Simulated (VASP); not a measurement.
# Band gap of Bi2Se3 (R-3m) at a fixed cell without spin-orbit coupling: LDA to meta-GGAs, and their cost

With the atoms of Bi2Se3 held in the same places, the calculated band gap grows about eightfold, from 0.104 eV in LDA to 0.846 eV in TB-mBJ, when the functional is changed. No bond has moved, so the cause must lie in how each functional places the two band edges. This matters to anyone choosing a level for this material, because its electronic character depends on the order and spacing of those edges. We compare the fundamental gap of seven levels with one another, taking LDA as the reference. Spin-orbit coupling is off throughout, so these gaps are not set against a measured one. We also examine whether a single strength of gradient correction explains the rise.

## Calculations

A structure from a diffraction database. The cell as listed is held fixed for all levels. VASP 6.6.1, plane waves with PAW, cutoff 400 eV, k meshes 4×4×4, no spin polarisation; no spin-orbit coupling. Gaps are the smallest found on the mesh and, where run, along the symmetry lines. All ran on Intel(R) Xeon(R) 6975P-C (Granite Rapids), shared with other work, so times are rough. All levels use the PAW data sets made with PBE. Non-spherical gradient terms inside the PAW spheres (LASPH) are on in the rows so marked and off in the others; they change results slightly and raise the cost.

Notes on method and selection:

- All levels leave out spin-orbit coupling, which changes gaps by tenths of an eV where heavy atoms carry the band edges.
- Runs that did not converge, have known faults or may not be shown are not listed, and runs on Ansatz's PAW sets soft_1 and soft_2 are kept to separate tables.

Columns:

- pressure (GPa): pressure at the fixed cell (positive: the level prefers a larger cell).
- gap (eV): fundamental gap.
- direct gap (eV): smallest direct gap.
- cost (core-s): processor time of the level.

## Table of results

| member | pressure (GPa) | gap (eV) | direct gap (eV) | cost (core-s) | remark |
| --- | --- | --- | --- | --- | --- |
| TB-mBJ | – | 0.846 | 0.846 | 1800 | LASPH on |
| r2SCAN | 1.3 | 0.490 | 0.490 | 3200 | LASPH on |
| TPSS | 1.9 | 0.274 | 0.274 | 3400 | LASPH on |
| PBE | 2.4 | 0.226 | 0.226 | 1000 |  |
| AM05 | 0.0 | 0.200 | 0.200 | 1100 |  |
| PBEsol | −0.4 | 0.149 | 0.149 | 1000 |  |
| LDA | −1.7 | 0.104 | 0.104 | 1000 |  |

gap (eV) by member:

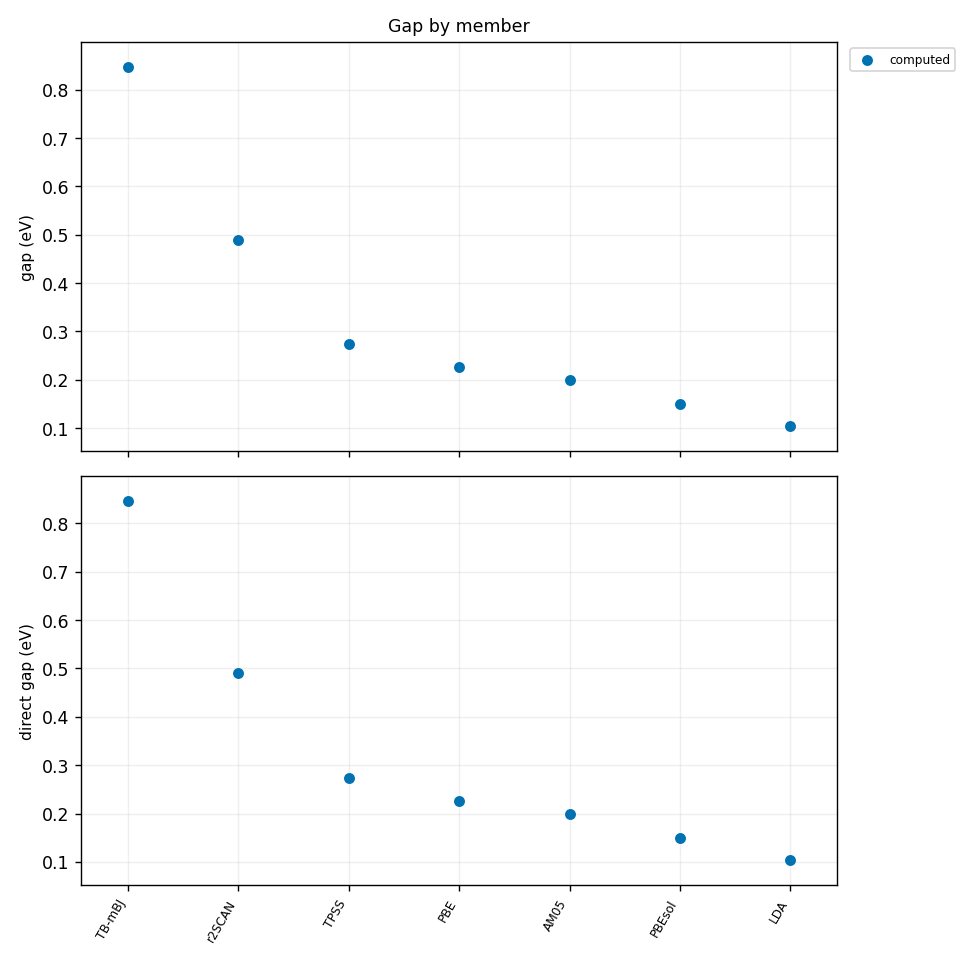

## Mechanism

The gap rises in the order LDA, PBEsol, AM05, PBE, TPSS, r2SCAN, TB-mBJ. The three gradient functionals (PBEsol, AM05 and PBE) lie within 0.122 eV of LDA. TPSS adds 0.048 eV to PBE, r2SCAN adds 0.264 eV and TB-mBJ 0.620 eV. Both edges lie at Γ at every level, so the gap is direct and the same k point is compared each time.

The simplest model treats a gradient functional as LDA plus a correction of adjustable strength. It rests on three assumptions.

1. The cell is fixed and the edge orbitals hardly change between levels.
2. The exchange-correlation energy is that of LDA plus λW, where W is the same gradient correction for all functionals and only the strength λ differs.
3. λ is small enough for first order to suffice.

The correction W adds a potential λw. To first order each edge moves by the average of λw over its own orbital, so the gap E becomes

E = E(LDA) + λA, with A = ⟨c|w|c⟩ − ⟨v|w|v⟩,

where c and v are the conduction and valence edge states. The gap opens if w raises the conduction edge more than the valence edge.

The same correction changes the pressure. Since P is minus the derivative of the energy with respect to volume,

P = P(LDA) + λB, with B = −dW/dV.

Eliminating λ gives

E = E(LDA) + s · (P − P(LDA)), with s = A/B.

This is a straight line with two constants, fixed by two members. The pressure does not cause the gap here: it serves as a second reading of λ. Among LDA and the three gradient functionals, gap and pressure do rise in the same order, as the model requires. The meta-GGAs break that order, since r2SCAN has a lower pressure than PBE but more than twice its gap.

## The model against the table

We fix the line on LDA and PBE, the two ends of the pressure range.

s = (0.226 − 0.104) / (2.4 + 1.7) = 0.122 / 4.1 = 0.0298 eV/GPa

The other four levels with a pressure then follow.

- PBEsol: 0.104 + 0.0298 × (−0.4 + 1.7) = 0.143 eV. The table has 0.149 eV, higher by 0.006 eV.
- AM05: 0.104 + 0.0298 × (0.0 + 1.7) = 0.155 eV. The table has 0.200 eV, higher by 0.200 − 0.155 = 0.045 eV.
- TPSS: 0.104 + 0.0298 × (1.9 + 1.7) = 0.211 eV. The table has 0.274 eV, higher by 0.274 − 0.211 = 0.063 eV.
- r2SCAN: 0.104 + 0.0298 × (1.3 + 1.7) = 0.193 eV. The table has 0.490 eV, higher by 0.490 − 0.193 = 0.297 eV.

The mean miss is (0.006 + 0.045 + 0.063 + 0.297) / 4 = 0.103 eV. For comparison, the mean of the four tabulated gaps is (0.149 + 0.200 + 0.274 + 0.490) / 4 = 0.278 eV. The largest deviation from it is that of r2SCAN, 0.490 − 0.278 = 0.212 eV, and the average deviation is (0.129 + 0.078 + 0.004 + 0.212) / 4 = 0.106 eV. The line is therefore practically no better than the mean.

Leaving out the meta-GGAs, for which the model was not derived, does not rescue it. For PBEsol and AM05 the mean miss is (0.006 + 0.045) / 2 = 0.026 eV, and the two gaps scatter about their own mean by the same 0.026 eV. The close agreement for PBEsol is a single case, and we do not use the line to estimate the gap of a further functional.

## Where the trend breaks

All four misses are positive: the line gives too small a gap each time.

For AM05 the miss is 0.045 eV. Its pressure is only 0.4 GPa above that of PBEsol, yet its gap is 0.051 eV larger, where the slope allows about 0.012 eV. The likely cause is the assumption of one common W: AM05 depends on the density gradient in a different way from the PBE family, so one strength need not describe both.

For r2SCAN the miss is 0.297 eV, larger than the PBE gap itself. Its energy depends on the kinetic-energy density, which adds a term acting on each orbital through that orbital's own gradient. Such a term can separate filled from empty states in a way that no common potential w does, and its usual effect is to widen the gap. TPSS has the same ingredient but misses by only 0.063 eV, so the form of the dependence matters more than its presence.

TB-mBJ lies outside the model. It is a potential designed to bring calculated gaps closer to measured ones, usually by widening them, and has no matching energy, hence no pressure.

## Cost against accuracy

LDA and the gradient functionals cost the same within the scatter, about 1000 core-s. r2SCAN takes 3200 / 1000 = 3.2 times as long as PBE and TPSS 3400 / 1000 = 3.4 times, part of which is due to the non-spherical terms switched on in those runs. For similar outlay, r2SCAN moves the gap by 0.264 eV from PBE and TPSS by only 0.048 eV. TB-mBJ, at 1800 core-s, makes the largest change but gives no pressure and so cannot be used to relax the cell. Further levels ran out of time before giving a gap, so the table covers only the cheaper end. For Bi2Se3 we would spend extra time first on adding spin-orbit coupling to a gradient functional, since that can change the order of the edges.

## Conclusions

At this fixed cell, gradient corrections open the LDA gap by 0.045 to 0.122 eV, while r2SCAN and TB-mBJ open it by several times more. A single strength of gradient correction, read from the pressure, does not explain the rise.

A decisive omitted effect is spin-orbit coupling. It shifts the edges by tenths of an eV, more than the whole spread from LDA to PBE and comparable with that of the full table. At Γ it lowers the Bi p state and raises the Se p state. This first closes the gap; in the accepted picture of Bi2Se3 the two states then change order and a gap reopens between them. A larger gap in this table therefore means a weaker tendency to invert, and not a better forecast of the measured gap.
